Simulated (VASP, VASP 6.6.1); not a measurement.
# Lattice constant of cubic Nb₃Sn: PBEsol within 1 % of X-ray diffraction, on the short side

## The question

The reference is the cubic lattice constant of A15 Nb₃Sn, a = 5.2882 ± 0.0002 Å, from X-ray diffraction on a hot-isostatically-pressed polycrystal annealed finally at 1400 °C ("Evidence that the upper critical field of Nb3Sn is independent of whether it is cubic or tetragonal", 2011, arXiv:1102.5118). The sample is slightly Sn-poor, with 24.6 at% Sn, and the temperature of the diffraction measurement is not given with the value. A companion sample annealed at 1600 °C, with 24.5 at% Sn, has 5.2872 ± 0.0006 Å. A slightly Sn-rich polycrystal measured at room temperature by powder diffraction with Rietveld refinement has 5.293 ± 0.001 Å ("Specific heat of Nb_3Sn: The case for a second energy gap", 2004, arXiv:cond-mat/0403590). The Sn-rich value lies above the other two by far more than the stated uncertainties, and composition is an obvious candidate for the difference.

| compared with | measured | source's wording or label | T (K) | method |
| --- | --- | --- | --- | --- |
| lattice constant a of the conventional cell (Å) | 5.2882 ± 0.0002 | a0 of cubic A15 phase | – | X-ray diffraction * |
| lattice constant a of the conventional cell (Å) | 5.2872 ± 0.0006 | a0 of cubic A15 phase | – | X-ray diffraction |
| lattice constant a of the conventional cell (Å) | 5.293 ± 0.001 | cubic lattice parameter at room temperature | room temperature | X-ray powder diffraction, Rietveld refinement |

Where a quantity has several values, deviations refer to the one marked *.

Conditions are those given with the value in the passage it was taken from; "not stated" means there, and the paper may say more elsewhere. The values are a selection: others may have been left out beforehand as unlike or outlying.

## How to go about it

I want the lattice constant of stoichiometric, cubic Nb₃Sn within 1 % of the reference. One per cent in length is three per cent in volume, about the point at which a wrong cell begins to matter for the density of states at the Fermi level and for the phonons of this compound. It also leaves room for what the model omits. The nuclei are static, and I expect thermal expansion up to room temperature and zero-point motion together to lengthen a by roughly 0.2 to 0.3 %. The samples are also slightly off stoichiometry.

The model is the eight-atom cubic cell with Pm-3n symmetry kept, so the low-temperature tetragonal distortion is excluded. The starting cell comes from a published refinement with a = 5.282 Å, a little below the reference, and is stretched by 3 % in volume so that the relaxation has to find its own way back.

I go straight to PBEsol, a gradient functional made for the equilibrium volumes of dense solids. LDA would overbind and give too short a cell, so I skip it. After the first relaxation I will test cutoff and k mesh at the PBEsol level, then set PBE beside it for scale.

System: Nb3Sn; Pm-3n (No. 223), 8 atoms in the cell; conventional a = 5.282 A, from a published structure refinement (COD).

On the selection of runs and values: 1 further cited values are not listed: repeats, values quoted from earlier work, more than five for one quantity or six quantities, or quantities that fewer than three runs give.

## 1. PBEsol relaxation of the cubic cell

This run carries the answer, so it comes first. I expect a to come out slightly below the reference, by a few tenths of a per cent, since the static cell lacks thermal and zero-point expansion.

**Run 1.** VASP 6.6.1: PBEsol; 450 eV, 6x6x6 k mesh; cell and atoms relaxed, relaxed twice, LASPH on.

Key lines of the input:
```
ALGO = Normal
EDIFF = 1E-06
EDIFFG = -0.006
ENCUT = 450
GGA = PS
IBRION = 2
ISIF = 3
ISMEAR = 1
LASPH = .TRUE.
NBANDS = 65
NELM = 100
NSW = 50
PREC = Accurate
SIGMA = 0.15
KPOINTS: Gamma, 6 6 6
PAW data sets: Sn_d Nb_sv (PBE 64)
```

Command:
```
mpirun -np 8 vasp_std
```

Selected lines of the output:
```
   4 F= -.75961323E+02 E0= -.75954414E+02  d E =-.159032E+00
[second pass]
   3 F= -.75950930E+02 E0= -.75944022E+02  d E =-.874255E-05
  external PRESSURE =      -0.0370408 kB  Pullay stress =       0.0000000 kB
     5.254333211 -0.000000000 -0.000000000     0.190319106 -0.000000000  0.000000000
```

Converged; 2.5 min on 8 cores of Intel Xeon 6975P-C (Granite Rapids), shared host.

| quantity | run 1 | measured | deviation |
| --- | --- | --- | --- |
| lattice constant a of the conventional cell (Å) | 5.2543 | 5.2882 ± 0.0002 | −0.0339 (−0.6 %) |
| volume of the conventional cell (Å³) | 145.06 |  |  |
| space group at the end | Pm-3n |  |  |
| pressure left at the end (GPa) | −0.00370 |  |  |

PBEsol gives a = 5.2543 Å, 0.6 % below the reference and inside the target. The sign is the one I expected, but the gap is wider than the 0.2 to 0.3 % I allowed for thermal and zero-point expansion, so part of it must come from elsewhere.

The energy at the end of the second pass lies about 0.010 eV per cell above that of the first. The first pass kept the plane waves of the stretched cell, and the second started with a basis rebuilt for the smaller one. That is a reason to test the cutoff directly.

## 2. Higher cutoff and denser k mesh

I raise the cutoff to 600 eV and, separately, the mesh to 8×8×8, each against the first run. The mesh concerns me more, because Nb₃Sn has sharp structure in the density of states near the Fermi level. I expect both shifts to be well below the 0.0339 Å that separates PBEsol from the reference.

**Run 2.** VASP 6.6.1: PBEsol; 600 eV, 6x6x6 k mesh; cell and atoms relaxed, relaxed twice, LASPH on.

Key lines of the input, as changed from run 1:
```diff
- ENCUT = 450
+ ENCUT = 600
```

Selected lines of the output:
```
   4 F= -.75955786E+02 E0= -.75948865E+02  d E =-.152802E+00
[second pass]
   1 F= -.75952934E+02 E0= -.75946014E+02  d E =-.759529E+02
      direct lattice vectors                 reciprocal lattice vectors
```

Converged; wall time 2.3 min.

**Run 3.** VASP 6.6.1: PBEsol; 450 eV, 8x8x8 k mesh; cell and atoms relaxed, relaxed twice, LASPH on.

Key lines of the input, as changed from run 1:
```diff
- KPOINTS: Gamma, 6 6 6
+ KPOINTS: Gamma, 8 8 8
```

Selected lines of the output:
```
  external PRESSURE =      -0.5232399 kB  Pullay stress =       0.0000000 kB
```

Converged; wall time 2.6 min.

| quantity | run 2 | run 3 | measured |
| --- | --- | --- | --- |
| lattice constant a of the conventional cell (Å) | 5.2562 | 5.2555 | 5.2882 ± 0.0002 |
| volume of the conventional cell (Å³) | 145.21 | 145.16 |  |
| space group at the end | Pm-3n | Pm-3n |  |
| pressure left at the end (GPa) | −0.00398 | −0.05232 |  |

The higher cutoff lengthens a by 0.0019 Å and the denser mesh by 0.0012 Å. Both shifts go towards the reference, and both are small against the gap of 0.0339 Å. The mesh shift is also blurred by the stopping threshold: the 8×8×8 run ended at −0.052 GPa, which for a bulk modulus of very roughly 160 GPa corresponds to several ten-thousandths of an ångström, in the direction of a shorter cell.

The step in energy between the two passes falls from about 0.010 to 0.003 eV at 600 eV, as it should if it comes from the plane-wave basis. PBEsol stays about 0.6 % short in all three runs, so neither setting accounts for the miss beyond thermal and zero-point expansion.

## 3. PBE for scale

I now want to know how much the choice of gradient functional matters here. PBE usually gives longer lattice constants than PBEsol, by about 1 % in metals, so I expect it to land above the reference. I keep 450 eV and 6×6×6 to compare with the first run. This relaxation is done in a single pass, so its basis stays that of the stretched starting cell; on the evidence of the cutoff test that should matter little against a difference between functionals.

**Run 4.** VASP 6.6.1: PBE; 450 eV, 6x6x6 k mesh; cell and atoms relaxed, LASPH on.

Key lines of the input, as changed from run 1:
```diff
- GGA = PS
+ GGA = PE
```

Selected lines of the output:
```
     5.314573578  0.000000000  0.000000000     0.188161851 -0.000000000 -0.000000000
```

Converged; wall time 1.9 min.

| quantity | run 4 | measured | deviation |
| --- | --- | --- | --- |
| lattice constant a of the conventional cell (Å) | 5.3146 | 5.2882 ± 0.0002 | +0.0264 (+0.5 %) |
| volume of the conventional cell (Å³) | 150.11 |  |  |
| space group at the end | Pm-3n |  |  |
| pressure left at the end (GPa) | −0.00537 |  |  |

PBE gives 5.3146 Å, 0.5 % above the reference and also inside the target. The two functionals differ by about 0.060 Å, roughly thirty times the shift from the higher cutoff, so the choice of functional dominates the numerical settings tested. The single pass does little harm here, because the PBE cell ends only about 1 % in volume below its starting cell.

On the raw deviations PBE looks slightly closer, but both cells are static. Thermal and zero-point expansion would lengthen them, which brings PBEsol nearer to the reference and takes PBE further away. With the allowance from the plan, PBEsol would remain roughly 0.3 to 0.4 % short and PBE would be roughly 0.7 to 0.8 % long. I stop here, since the PBEsol result meets the target at each of the settings tested.

## The runs side by side

| run | settings | lattice constant a of the conventional cell (Å) | deviation | cost |
| --- | --- | --- | --- | --- |
| 1 | PBEsol, 450 eV, 6x6x6 k mesh, relaxed twice | 5.2543 | −0.0339 (−0.6 %) | 20 core-min |
| 2 | PBEsol, 600 eV, 6x6x6 k mesh, relaxed twice | 5.2562 | −0.0320 (−0.6 %) | 19 core-min |
| 3 | PBEsol, 450 eV, 8x8x8 k mesh, relaxed twice | 5.2555 | −0.0327 (−0.6 %) | 21 core-min |
| 4 | PBE, 450 eV, 6x6x6 k mesh | 5.3146 | +0.0264 (+0.5 %) | 15 core-min |
|  | measured | 5.2882 ± 0.0002 |  |  |

The runs in order, against the measurement:

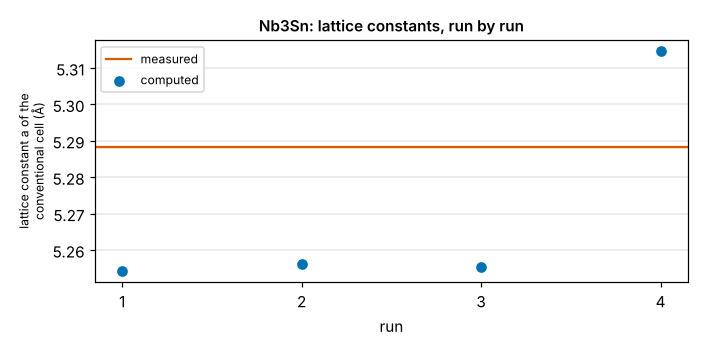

Further runs on the same system, made beside this series (convergence steps with loose settings among them):

| further | settings | lattice constant a of the conventional cell (Å) | deviation | cost |
| --- | --- | --- | --- | --- |
| F1 | r2SCAN, 450 eV, 6x6x6 k mesh, relaxed twice | 5.3014 | +0.0133 (+0.3 %) | 33 core-min |
| F2 | r2SCAN + rVV10, 450 eV, 6x6x6 k mesh, relaxed twice | 5.2885 | +0.0003 (+0.0 %) | 55 core-min |
| F3 | vdW-DF-cx, 450 eV, 6x6x6 k mesh, relaxed twice | 5.2629 | −0.0253 (−0.5 %) | 45 core-min |
| F4 | PBEsol + D3(BJ), 450 eV, 6x6x6 k mesh, relaxed twice | 5.1927 | −0.0955 (−1.8 %) | 30 core-min |
| F5 | PBEsol + D4, 450 eV, 6x6x6 k mesh, relaxed twice | 5.2350 | −0.0532 (−1.0 %) | 14 core-min |
| F6 | LDA, 450 eV, 6x6x6 k mesh, relaxed twice | 5.2191 | −0.0691 (−1.3 %) | 23 core-min |
| F7 | PBEsol, 290 eV, 6x6x6 k mesh, relaxed twice | 5.2455 | −0.0427 (−0.8 %) | 7.1 core-min |
| F8 | PBEsol, 450 eV, 3x3x3 k mesh, relaxed twice | 5.2532 | −0.0350 (−0.7 %) | 3.1 core-min |
|  | measured | 5.2882 ± 0.0002 |  |  |

## What the runs support

PBEsol meets the 1 % target. At 600 eV it gives a = 5.2562 Å, 0.6 % below the reference, for about 20 core-minutes.

The cutoff and mesh checks each moved a by less than 0.002 Å; the two tighter settings combined are not shown in this report. Even a 3×3×3 mesh changes a by only 0.0011 Å, at a fraction of the cost. Dropping the cutoff to 290 eV costs more accuracy, shortening the cell by 0.0088 Å, though it still passes.

The static cell should be too short. If the reference was taken near room temperature, thermal and zero-point expansion explain roughly 0.2 to 0.3 % of the gap, leaving PBEsol 0.3 to 0.4 % short. I put most of that down to the functional. Composition probably doesn't help: the reference sample is slightly Sn-poor, and the Sn-rich one has the longer cell, so a stoichiometric crystal may lie further from PBEsol.

PBE also passes, 0.5 % long, but expansion would widen its error. LDA misses at −1.3 %, which bears out skipping it. Adding dispersion to PBEsol shortens a cell that is already short: D3(BJ) misses clearly, D4 by a hair.

PBEsol is not the closest level. r2SCAN + rVV10 falls almost exactly on the reference, but a static cell ought not to, and with expansion it would be roughly 0.2 to 0.3 % long. That is slightly closer than corrected PBEsol, but the margin is no larger than the difference of about 0.1 % between the measured samples. I therefore can't rank these two firmly without the temperature of the reference measurement and a calculated expansion.

[Logs are printed without paths, hosts, clocks, repeated set-up lines and the standing remarks that a program may print on its own settings, such as how far it seeks lower states.]

[The runs shown are a pick from a larger set of finished runs; failed, doubtful and other runs were left out of it ahead of writing. So were measured values far from every level or from commonly accepted values, and agreement can look better than it is. Lines of input and output are excerpts and may be shortened.]
